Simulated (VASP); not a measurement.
# Transverse strain, stress and strain energy of diamond-structure carbon (Fd-3m) under uniaxial [111] stress in LDA

Each carbon atom in the diamond structure is held by four equivalent covalent bonds. A load along [111] singles out one of them, which lies on the axis, while the other three lie close to the plane across it. We examine how the crystal responds in width, stress and energy when it is strained by up to 2 % either way, which elastic moduli follow, and where proportionality begins to fail. The answer matters for diamond anvils, mechanical resonators and strained diamond electronics, where stress is inferred from strain or the reverse. All quantities are LDA results for a static lattice. Strains and energies are counted from the crystal relaxed at the same level, and no comparison with experiment is made here.

## Systems and settings

The start is a typed prototype cell. The crystal was relaxed with LDA. Strain is imposed along [111]; the strain across the axis is adjusted until the stress across it vanishes, and the atoms are relaxed with LDA. VASP 6.6.1, plane waves with PAW, cutoff 600 eV, no spin polarisation, no spin-orbit coupling, k mesh 14×14×14, static lattice.

Notes on method and selection:

- Runs that did not converge, have known faults or may not be shown are not listed, and runs on Ansatz's PAW sets soft_1 and soft_2 are kept to separate tables.

Columns:

- strain (%): strain along the axis (tension positive).
- gap (eV): band gap on the k mesh at LDA.
- transverse strain (%): strain across the axis.
- stress (GPa): stress along the axis, tension positive.
- strain energy (meV/atom): energy per atom above the relaxed crystal.

Input lines of one member:

```
PREC = Accurate
ENCUT = 600
EDIFF = 1E-07
NELM = 120
ISMEAR = 0
SIGMA = 0.02
LREAL = .FALSE.
ALGO = Normal
GGA = CA
NBANDS = 10
LASPH = .TRUE.
LORBIT = 11
KPAR = 3
IBRION = 1
NSW = 25
```

Command (options for logging and memory left out): `mpirun -np 3 vasp_std`

## The series

```
member  strain (%)  gap (eV)  transverse strain (%)  stress (GPa)  strain energy (meV/atom)
−2 %    −2.0        4.123     0.1222                 −26.51        9.51
−1.5 %  −1.5        4.141     0.0905                 −19.63        5.39
−1 %    −1.0        4.153     0.0594                 −12.91        2.45
−0.5 %  −0.5        4.162     0.0305                 −6.38         0.66
0 %     0.0         4.166     0.0036                 −0.03         0.00
+0.5 %  0.5         4.147     −0.0242                6.12          0.38
+1 %    1.0         4.128     ?                      ?             ?
+1.5 %  1.5         4.107     −0.0736                17.89         4.26
+2 %    2.0         4.085     −0.0980                23.49         7.71
```

Cells marked ? are withheld until the estimate has been made.

transverse strain (%) against strain (%), members shown:

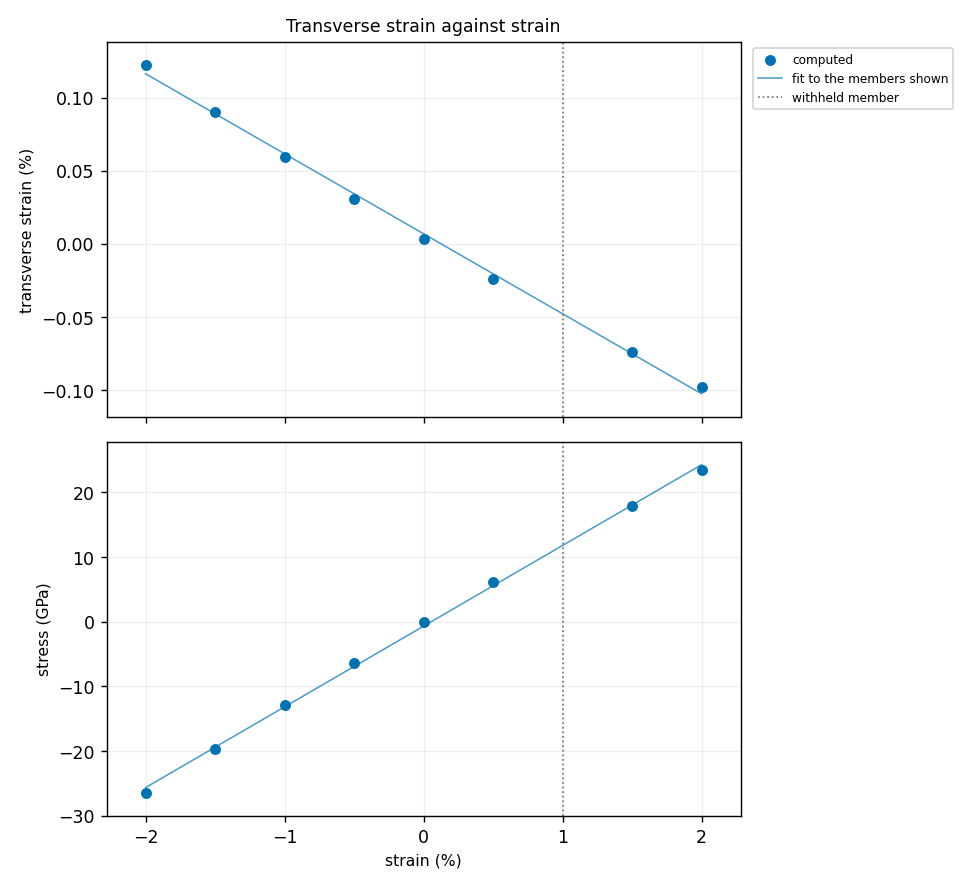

Least-squares fits to the members shown, with x = strain (%); R² and errors in the fitted variable (y, or ln y where the fit is in ln y):

```
y                      members  fit                       R²    rms residual  leave-one-out rms  the same for the mean of the others
transverse strain (%)  8        y = 0.006958 − 0.05474 x  1.00  0.0036        0.0053             0.082
stress (GPa)           8        y = −0.6847 + 12.48 x     1.00  0.56          0.84               19
```

## Why the values move as they do

The stress rises with strain throughout the rows, and the transverse strain falls. Differences between the ±0.5 % rows cancel the small offsets at zero strain. They give a Young's modulus along [111] of (6.12 + 6.38) / 0.010 = 1250 GPa and a Poisson ratio of (0.0305 + 0.0242) / 1.0 = 0.0547.

For a cubic crystal loaded along [111], two further moduli follow:

$B = E/[3(1-2\nu)]$ = 1250 / (3 × (1 − 2 × 0.0547)) = 468 GPa

$C_{44} = E/[2(1+\nu)]$ = 1250 / (2 × (1 + 0.0547)) = 593 GPa

This loading does not give $C_{11}$ and $C_{12}$ separately. The Poisson ratio is small because directional bonds resist changes of angle, so that the shear stiffness exceeds the bulk modulus and the crystal narrows little when stretched.

A linear law with 1250 GPa predicts 25.0 GPa at 2 %. The calculated magnitudes are 26.51 GPa in compression and 23.49 GPa in tension, a departure of 6 % each way; at 0.5 % it is about 2 %. The sign is that expected of anharmonic bonds, which stiffen when shortened and soften when stretched. The transverse response weakens too, from (0.1222 − 0.0905) / 0.5 = 0.063 between −2 % and −1.5 % to (0.0980 − 0.0736) / 0.5 = 0.049 between +1.5 % and +2 %.

The strain energy is nearly quadratic once opposite strains are averaged: (0.66 + 0.38) / 2 = 0.52 meV/atom at ±0.5 % and (9.51 + 7.71) / 2 = 8.61 meV/atom at ±2 %, a ratio of 8.61 / 0.52 = 16.6 against the ideal 16. Its asymmetry is not purely elastic. Relative to these means, the difference between compression and tension is (0.66 − 0.38) / 0.52 = 0.54 at 0.5 % but (9.51 − 7.71) / 8.61 = 0.21 at 2 %, whereas cubic anharmonicity would make it grow with strain. A term linear in strain is therefore present, although the stress at zero strain is only −0.03 GPa. The likely cause is the plane-wave basis: at fixed cutoff a larger cell holds more plane waves, which lowers the energy slightly in tension, and the calculated stress does not include this effect.

## Prediction

Plain estimates from the members shown:

- +1 %, fit at x = 1.0: −0.0478 %
- +1 %, straight-line interpolation between +0.5 % and +1.5 %: w = (1.0 − 0.5) / (1.5 − 0.5) = 0.500, so −0.0242 + 0.500 × (−0.0736 − (−0.0242)) = −0.0489 %

The straight-line fit gives −0.0478 % at +1 %, but it ignores the curvature seen in the rows. Interpolation between +0.5 % and +1.5 % is closer to the data, yet a chord lies above a curve that bends upwards, so its −0.0489 % should be slightly too high. Bond anharmonicity varies smoothly over this range, and a cubic through the two nearest rows on each side takes the bend into account. For equally spaced strains with the middle one missing, it reads

$t_0 = \tfrac{2}{3}(t_{-1}+t_{+1}) - \tfrac{1}{6}(t_{-2}+t_{+2})$,

where the subscripts count steps of 0.5 % from the missing row.

At +1 % this gives 2 × (−0.0242 − 0.0736) / 3 − (0.0036 − 0.0980) / 6 = −0.0495 %. The shift from the chord is −0.0006 %.

The same formula can be tried on two shown rows. At −1 % it gives 2 × (0.0905 + 0.0305) / 3 − (0.1222 + 0.0036) / 6 = 0.0597 % against 0.0594 %, and at −0.5 % it gives 2 × (0.0594 + 0.0036) / 3 − (0.0905 − 0.0242) / 6 = 0.03095 % against 0.0305 %. The misses are 0.0003 and 0.0005 %. With only two tests, and with the offset of 0.0036 % at zero strain entering the estimate, we set the standard deviation slightly above the larger miss, at 0.0006 %.

**Committed estimate, +1 %: transverse strain = −0.0495 ± 0.0006 %.**

## The answer

```
member  strain (%)  gap (eV)  transverse strain (%)  stress (GPa)  strain energy (meV/atom)
+1 %    1.0         4.128     −0.0492                12.11         1.81
```

```
member  estimate       transverse strain (%)  computed  estimate − computed  miss in error bars
+1 %    committed      −0.0495                −0.0492   −0.0003              0.5
+1 %    fit            −0.0478                −0.0492   +0.0014
+1 %    interpolation  −0.0489                −0.0492   +0.0003
```

transverse strain (%) against strain (%):

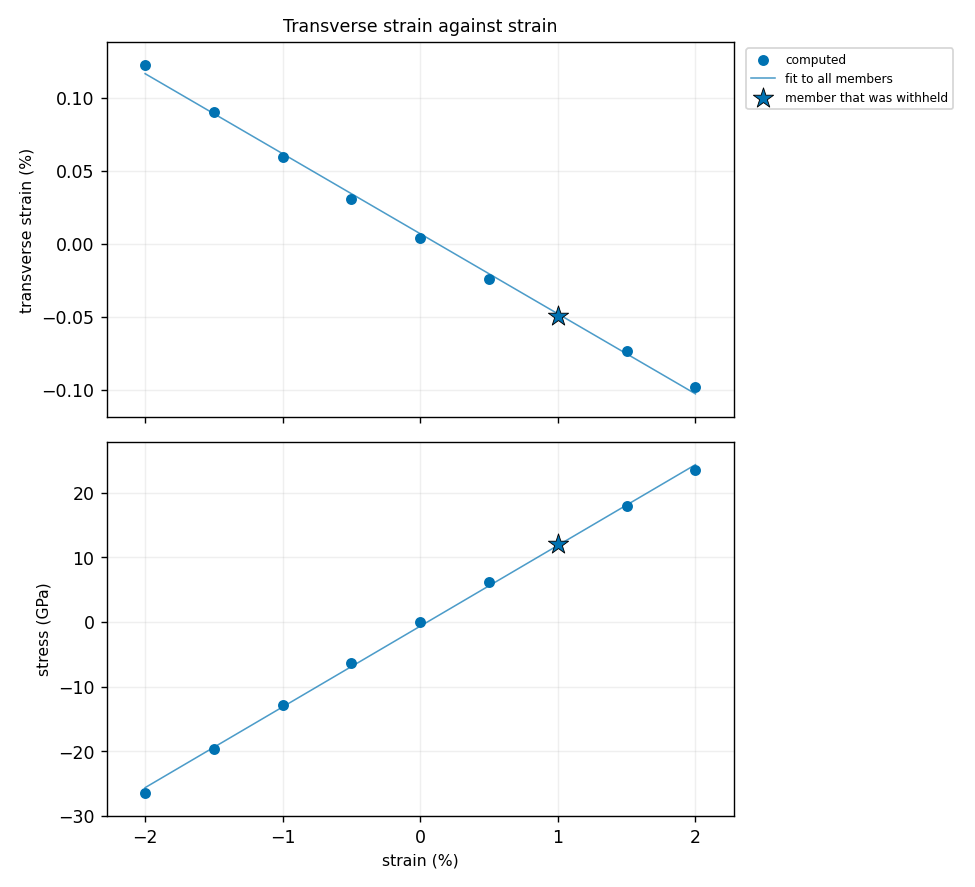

The estimate of −0.0495 % lies 0.0003 % below the computed −0.0492 %, half an error bar away. It did better than the straight-line fit, which missed by 0.0014 %, but no better than plain interpolation, which missed by the same 0.0003 % on the other side.

The argument against the fit was right, since a single line over the whole range ignores the bend. The computed value also lies below the chord, as we expected, but by only half of the 0.0006 % that the cubic formula gave. A difference this small has no physical meaning: a leftover stress of 0.01 GPa across the axis would shift the transverse strain by about 0.01 / 1250, or 0.0008 %. The added row therefore agrees with a smooth anharmonic response without being a sharp test of it. The cubic formula gained nothing measurable over interpolation at this spacing.

## Exceptions

Least-squares fits to the whole series, with x = strain (%); R² and errors in the fitted variable (y, or ln y where the fit is in ln y):

```
y                      members  fit                       R²    rms residual  leave-one-out rms  the same for the mean of the others
transverse strain (%)  9        y = 0.006800 − 0.05483 x  1.00  0.0034        0.0049             0.080
stress (GPa)           9        y = −0.6500 + 12.50 x     1.00  0.54          0.77               18
```

Largest departures from the fit to the whole series:

```
member  transverse strain (%)  fit      computed − fit  in rms residuals
−2 %    0.1222                 0.1165   +0.0057         1.7
+2 %    −0.0980                −0.1029  +0.0049         1.4
−0.5 %  0.0305                 0.0342   −0.0037         1.1
+0.5 %  −0.0242                −0.0206  −0.0036         1.0
```

The largest departures from the line belong to one pattern. The rows at ±2 % lie above it by 0.0057 and 0.0049 %, and those at ±0.5 % lie below it by 0.0037 and 0.0036 %. The rows at ±1.5 % are also above the line, and those at ±1 % and zero are below. This is the signature of an upward bend: the crystal widens more under compression than it narrows under an equal extension. Anharmonic bonding is the likely cause, and none of these rows needs a separate one.

The zero-strain row has a small peculiarity of its own, a transverse strain of 0.0036 % where zero would be expected. The reference crystal was left very slightly compressed, and it widens when the stress across the axis is released. The remaining axial stress of −0.03 GPa has the matching sign, and 0.03 / 1250 = 0.0024 % gives the right order of size. The fitted intercept of 0.0068 % is larger because it also absorbs part of the bend.

## Summary

Between −2 and +2 %, the stress in GPa follows $\sigma = 12.5\,x - 0.38\,x^2$, with $x$ the strain in per cent. The first coefficient comes from the differences between opposite strains, the second from the ±2 % rows: (26.51 − 23.49) / (2 × 4) = 0.38. The formula meets all nine rows within 0.04 GPa, whereas guessing each row from the mean of the others errs by 18 GPa rms. A tension of 10 GPa thus corresponds to a strain of 0.82 %, where the linear law gives 10 / 12.5 = 0.80 %.

Linear elasticity errs by about 3 % in stress at ±1 % strain and 6 % at ±2 %. For a new strain inside the range, interpolation between rows 1 % apart should give the transverse strain to roughly 0.001 %. The largest miss among the rows is at +0.5 %, where the chord gives (0.0036 − 0.0492) / 2 = −0.0228 % against the computed −0.0242 %.

No omitted effect should rival the spread of the table. Zero-point motion would lower the moduli by roughly a few per cent, which is comparable with the nonlinearity seen here.

[Logs are printed without paths, hosts, clocks, repeated set-up lines and the standing remarks that a program may print on its own settings, such as how far it seeks lower states.]
